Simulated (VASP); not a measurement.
# Palladium under biaxial (001) strain: normal strain, stress and strain energy with PBEsol

Palladium is a close-packed metal with a nearly filled 4d shell, in which each atom has twelve equal neighbours. Strain in the (001) plane divides them into four within the plane and eight in the planes above and below. A thin film grown on a substrate of different lattice constant is in this state: its in-plane spacing is imposed, while its thickness is free to adjust.

The question is how the normal strain, the in-plane stress and the strain energy follow the imposed strain, which elastic moduli result, and where linear elasticity ceases to be adequate. Strains and energies are measured from the cubic crystal relaxed with PBEsol, and tensile stress is positive.

## Computational details

The start is an entry of the ASE's table of reference states database. The crystal was relaxed with PBEsol. Equal strain is imposed in the (001) plane; the strain along the normal is adjusted until the normal stress vanishes, and the atoms are relaxed with PBEsol. VASP 6.6.1, plane waves with PAW, cutoff 450 eV, no spin polarisation, no spin-orbit coupling, k mesh 26×26×26, static lattice. The same in all rows: band gap on the k mesh at PBEsol: 0.000 eV.

Notes on method and selection:

- Runs that did not converge, have known faults or may not be shown are not listed, and runs on Ansatz's PAW sets soft_1 and soft_2 are kept to separate tables.

Columns:

- strain (%): strain in the plane (tension positive).
- normal strain (%): strain along the normal.
- stress (GPa): in-plane stress, tension positive.
- strain energy (meV/atom): energy per atom above the relaxed crystal.

Input lines of one member:

```
PREC = Accurate
ENCUT = 450
EDIFF = 1E-07
NELM = 120
ISMEAR = 1
SIGMA = 0.15
LREAL = .FALSE.
ALGO = Normal
GGA = PS
NBANDS = 11
LASPH = .TRUE.
LORBIT = 11
KPAR = 2
IBRION = 1
NSW = 25
```

Command (options for logging and memory left out): `mpirun -np 2 vasp_std`

## Data

| member | strain (%) | normal strain (%) | stress (GPa) | strain energy (meV/atom) |
| --- | --- | --- | --- | --- |
| −2 % | −2.0 | 2.969 | −3.81 | 6.539 |
| −1.5 % | −1.5 | 2.224 | −2.74 | 3.543 |
| −1 % | −1.0 | 1.480 | −1.75 | 1.523 |
| −0.5 % | −0.5 | 0.739 | −0.83 | 0.3656 |
| 0 % | 0.0 | 0.000 | 0.01 | 1.00×10⁻⁵ |
| +0.5 % | 0.5 | −0.747 | 0.74 | 0.3362 |
| +1 % | 1.0 | −1.511 | 1.37 | 1.278 |
| +1.5 % | 1.5 | −2.288 | 1.88 | 2.752 |
| +2 % | 2.0 | −3.088 | 2.26 | 4.609 |

normal strain (%) against strain (%):

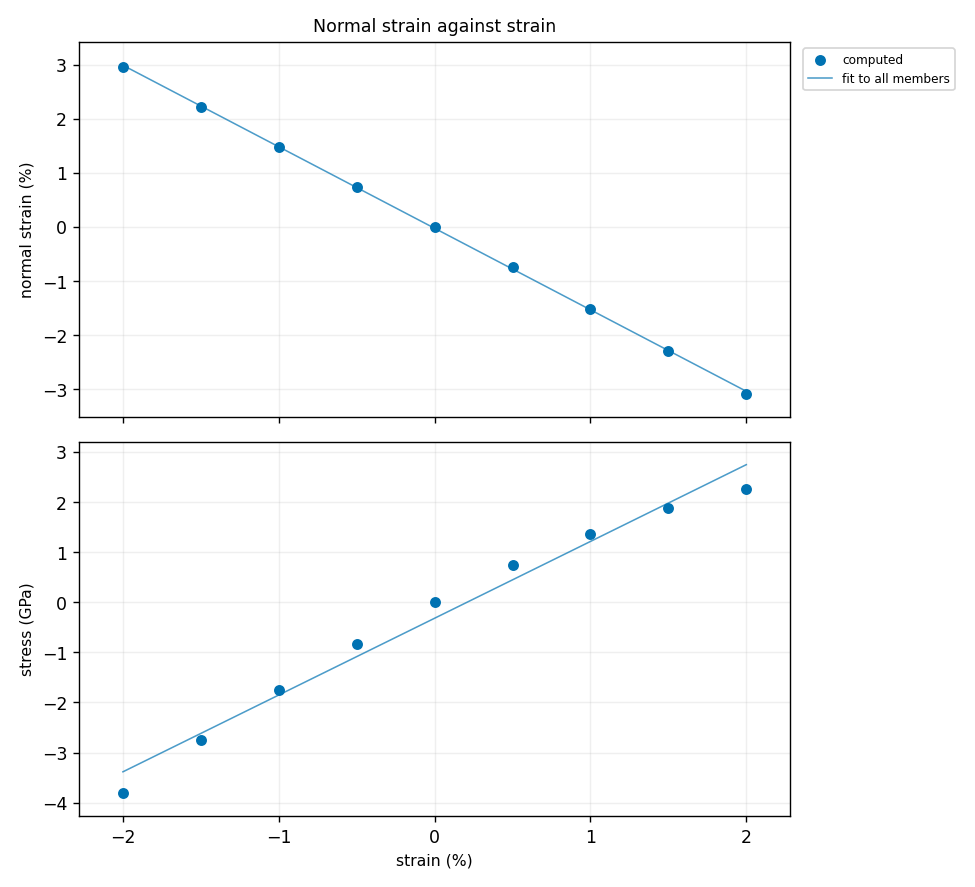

Least-squares fits to the whole series, with x = strain (%); R² and errors in the fitted variable (y, or ln y where the fit is in ln y):

| y | members | fit | R² | rms residual | leave-one-out rms | the same for the mean of the others |
| --- | --- | --- | --- | --- | --- | --- |
| normal strain (%) | 9 | y = −0.02467 − 1.508 x | 1.00 | 0.024 | 0.034 | 2.2 |
| stress (GPa) | 9 | y = −0.3189 + 1.532 x | 0.98 | 0.29 | 0.41 | 2.2 |

## The trend and its physics

Stretching the plane thins the crystal by about 1.5 times the imposed strain, almost in proportion. The stress is less regular: from one row to the next it rises by 3.81 − 2.74 = 1.07 GPa at the compressive end but by only 2.26 − 1.88 = 0.38 GPa at the tensile end. Compression therefore costs more energy than equal tension, 6.539 against 4.609 meV/atom at 2 %.

The model starts from Hooke's law for a cubic crystal with in-plane strain $e$ and normal strain $e_n$. No internal displacement enters, because the single atom of the primitive cell is fixed by symmetry. The normal stress must vanish:

$$2C_{12}e + C_{11}e_n = 0 \;\Rightarrow\; e_n = -r\,e,\quad r = 2C_{12}/C_{11}.$$

Inserting this into the in-plane stress $(C_{11}+C_{12})e + C_{12}e_n$ gives $\sigma = Me$, with

$$M = C_{11}(1-\rho)(1+2\rho),\quad \rho = C_{12}/C_{11} = r/2.$$

Hooke's law makes tension and compression mirror images, which the table contradicts. The simplest remedy is one quadratic term:

$$\sigma = Me + Ne^2.$$

Work is done along two in-plane directions, so $dE = 2V_0\,\sigma\,de$ if the volume per atom $V_0$ is held constant. Integration gives

$$E = V_0\left(Me^2 + \tfrac{2}{3}Ne^3\right).$$

The elastic parameters are $r$, $M$ and $N$; $V_0$ only converts an energy density into an energy per atom.

A negative $N$ is expected from the shape of a bond's energy curve, which is steeper on the short side than on the long side. The path adds to this: in-plane tension lowers the axial ratio from its face-centred towards its body-centred cubic value, where symmetry again removes the tetragonal shear stress. Ordinary softening by expansion is too weak on its own. At +2 % the volume grows by a factor 1.02² × (1 − 3.088 / 100) = 1.008. With a pressure derivative of the bulk modulus of about 6, a typical size for such metals, this lowers the bulk modulus by roughly 5 %, whereas the slope $M + 2Ne$ falls to about half.

## Fixing and testing the model

The parameters are fixed on the members −1 % and +1 %, with strain $x$ in per cent.

- $r$ = (1.511 + 1.480) / 2 = 1.496
- $M$ = (1.37 + 1.75) / 2 = 1.56 GPa per %, or 1.56 × 100 = 156 GPa
- $N$ = (1.37 − 1.75) / 2 = −0.19 GPa per %²
- $V_0M$ = (1.278 + 1.523) / 2 = 1.4005 meV/atom per %²

The cubic term of the energy has the relative weight (2/3) × (−0.19) / 1.56 = −0.0812 per %.

**+2 %**
- Normal strain: −1.496 × 2 = −2.992 % (table −3.088)
- Stress: 1.56 × 2 − 0.19 × 4 = 2.36 GPa (table 2.26)
- Energy: 1.4005 × (4 − 0.0812 × 8) = 4.69 meV/atom (table 4.609)

**−2 %**
- Normal strain: 1.496 × 2 = 2.992 % (table 2.969)
- Stress: −1.56 × 2 − 0.19 × 4 = −3.88 GPa (table −3.81)
- Energy: 1.4005 × (4 + 0.0812 × 8) = 6.51 meV/atom (table 6.539)

**+1.5 %**
- Normal strain: −1.496 × 1.5 = −2.244 % (table −2.288)
- Stress: 1.56 × 1.5 − 0.19 × 1.5² = 1.91 GPa (table 1.88)
- Energy: 1.4005 × (1.5² − 0.0812 × 1.5³) = 2.77 meV/atom (table 2.752)

The moduli follow from $\rho$ = 1.496 / 2 = 0.748:

- $C_{11}$ = 156 / ((1 − 0.748) × (1 + 2 × 0.748)) = 248 GPa
- $C_{12}$ = 0.748 × 248 = 185.5 GPa
- Bulk modulus: (248 + 2 × 185.5) / 3 = 206 GPa
- Tetragonal shear modulus: (248 − 185.5) / 2 = 31 GPa

The ±0.5 % pair, treated in the same way, gives $\rho$ = (0.747 + 0.739) / 2 = 0.743 and $M$ = (0.74 + 0.83) × 100 = 157 GPa, hence $C_{11}$ = 157 / ((1 − 0.743) × (1 + 2 × 0.743)) = 246 GPa and $C_{12}$ = 0.743 × 246 = 183 GPa. The modulus $C_{44}$ does not enter, because this strain contains no shear between the cube axes.

## Residuals

Largest departures from the fit to the whole series:

| member | normal strain (%) | fit | computed − fit | in rms residuals |
| --- | --- | --- | --- | --- |
| +2 % | −3.088 | −3.041 | −0.047 | 2.0 |
| +0.5 % | −0.747 | −0.779 | +0.032 | 1.3 |
| 0 % | 0.000 | −0.025 | +0.025 | 1.0 |
| −2 % | 2.969 | 2.991 | −0.022 | 0.9 |

Without the quadratic term, Hooke's law with $M$ = 156 GPa misses the stress by 5 to 6 % at ±0.5 %, and by 14 % at +1 % and 11 % at −1 %. At +2 % it gives 1.56 × 2 = 3.12 GPa, which is 38 % too high; at −2 % the magnitude is 18 % too low. The assumption that fails is a stiffness independent of strain.

The printed straight line for the stress hides this behind R² = 0.98. Its intercept of −0.3189 GPa is no residual stress, since the unstrained row has 0.01 GPa. It is the mean of the missing curvature: −0.19 × 1.667 = −0.32 GPa, where 2 × (0.5² + 1² + 1.5² + 2²) / 9 = 1.667 is the mean square strain of the rows in %².

With the quadratic term, the stress is still 0.10 GPa too high at +2 % and 0.07 GPa too low at −2 %. Opposite signs at opposite strains point to a neglected cubic term with a negative coefficient. The normal strain departs most at +2 %, where the crystal thins by 3.088 − 2.992 = 0.096 percentage points more than a constant $r$ allows.

## Conclusions

Linear elasticity describes the normal strain to about 3 % over the whole series, but the stress only to about 6 % at ±0.5 %. One quadratic term brings the stress within 5 % at every strained row.

Two effects lie outside this description. Soft bulk palladium yields by dislocation motion well below most of the stresses listed here; thin, coherent films can carry far more. Palladium is also close to ferromagnetism. Allowing spin polarisation could lower the energy slightly. Only the change of this lowering with strain would enter the strain energy; if it grows under tension, as the larger volume suggests, it would soften that side further.

[Logs are printed without paths, hosts, clocks, repeated set-up lines and the standing remarks that a program may print on its own settings, such as how far it seeks lower states.]
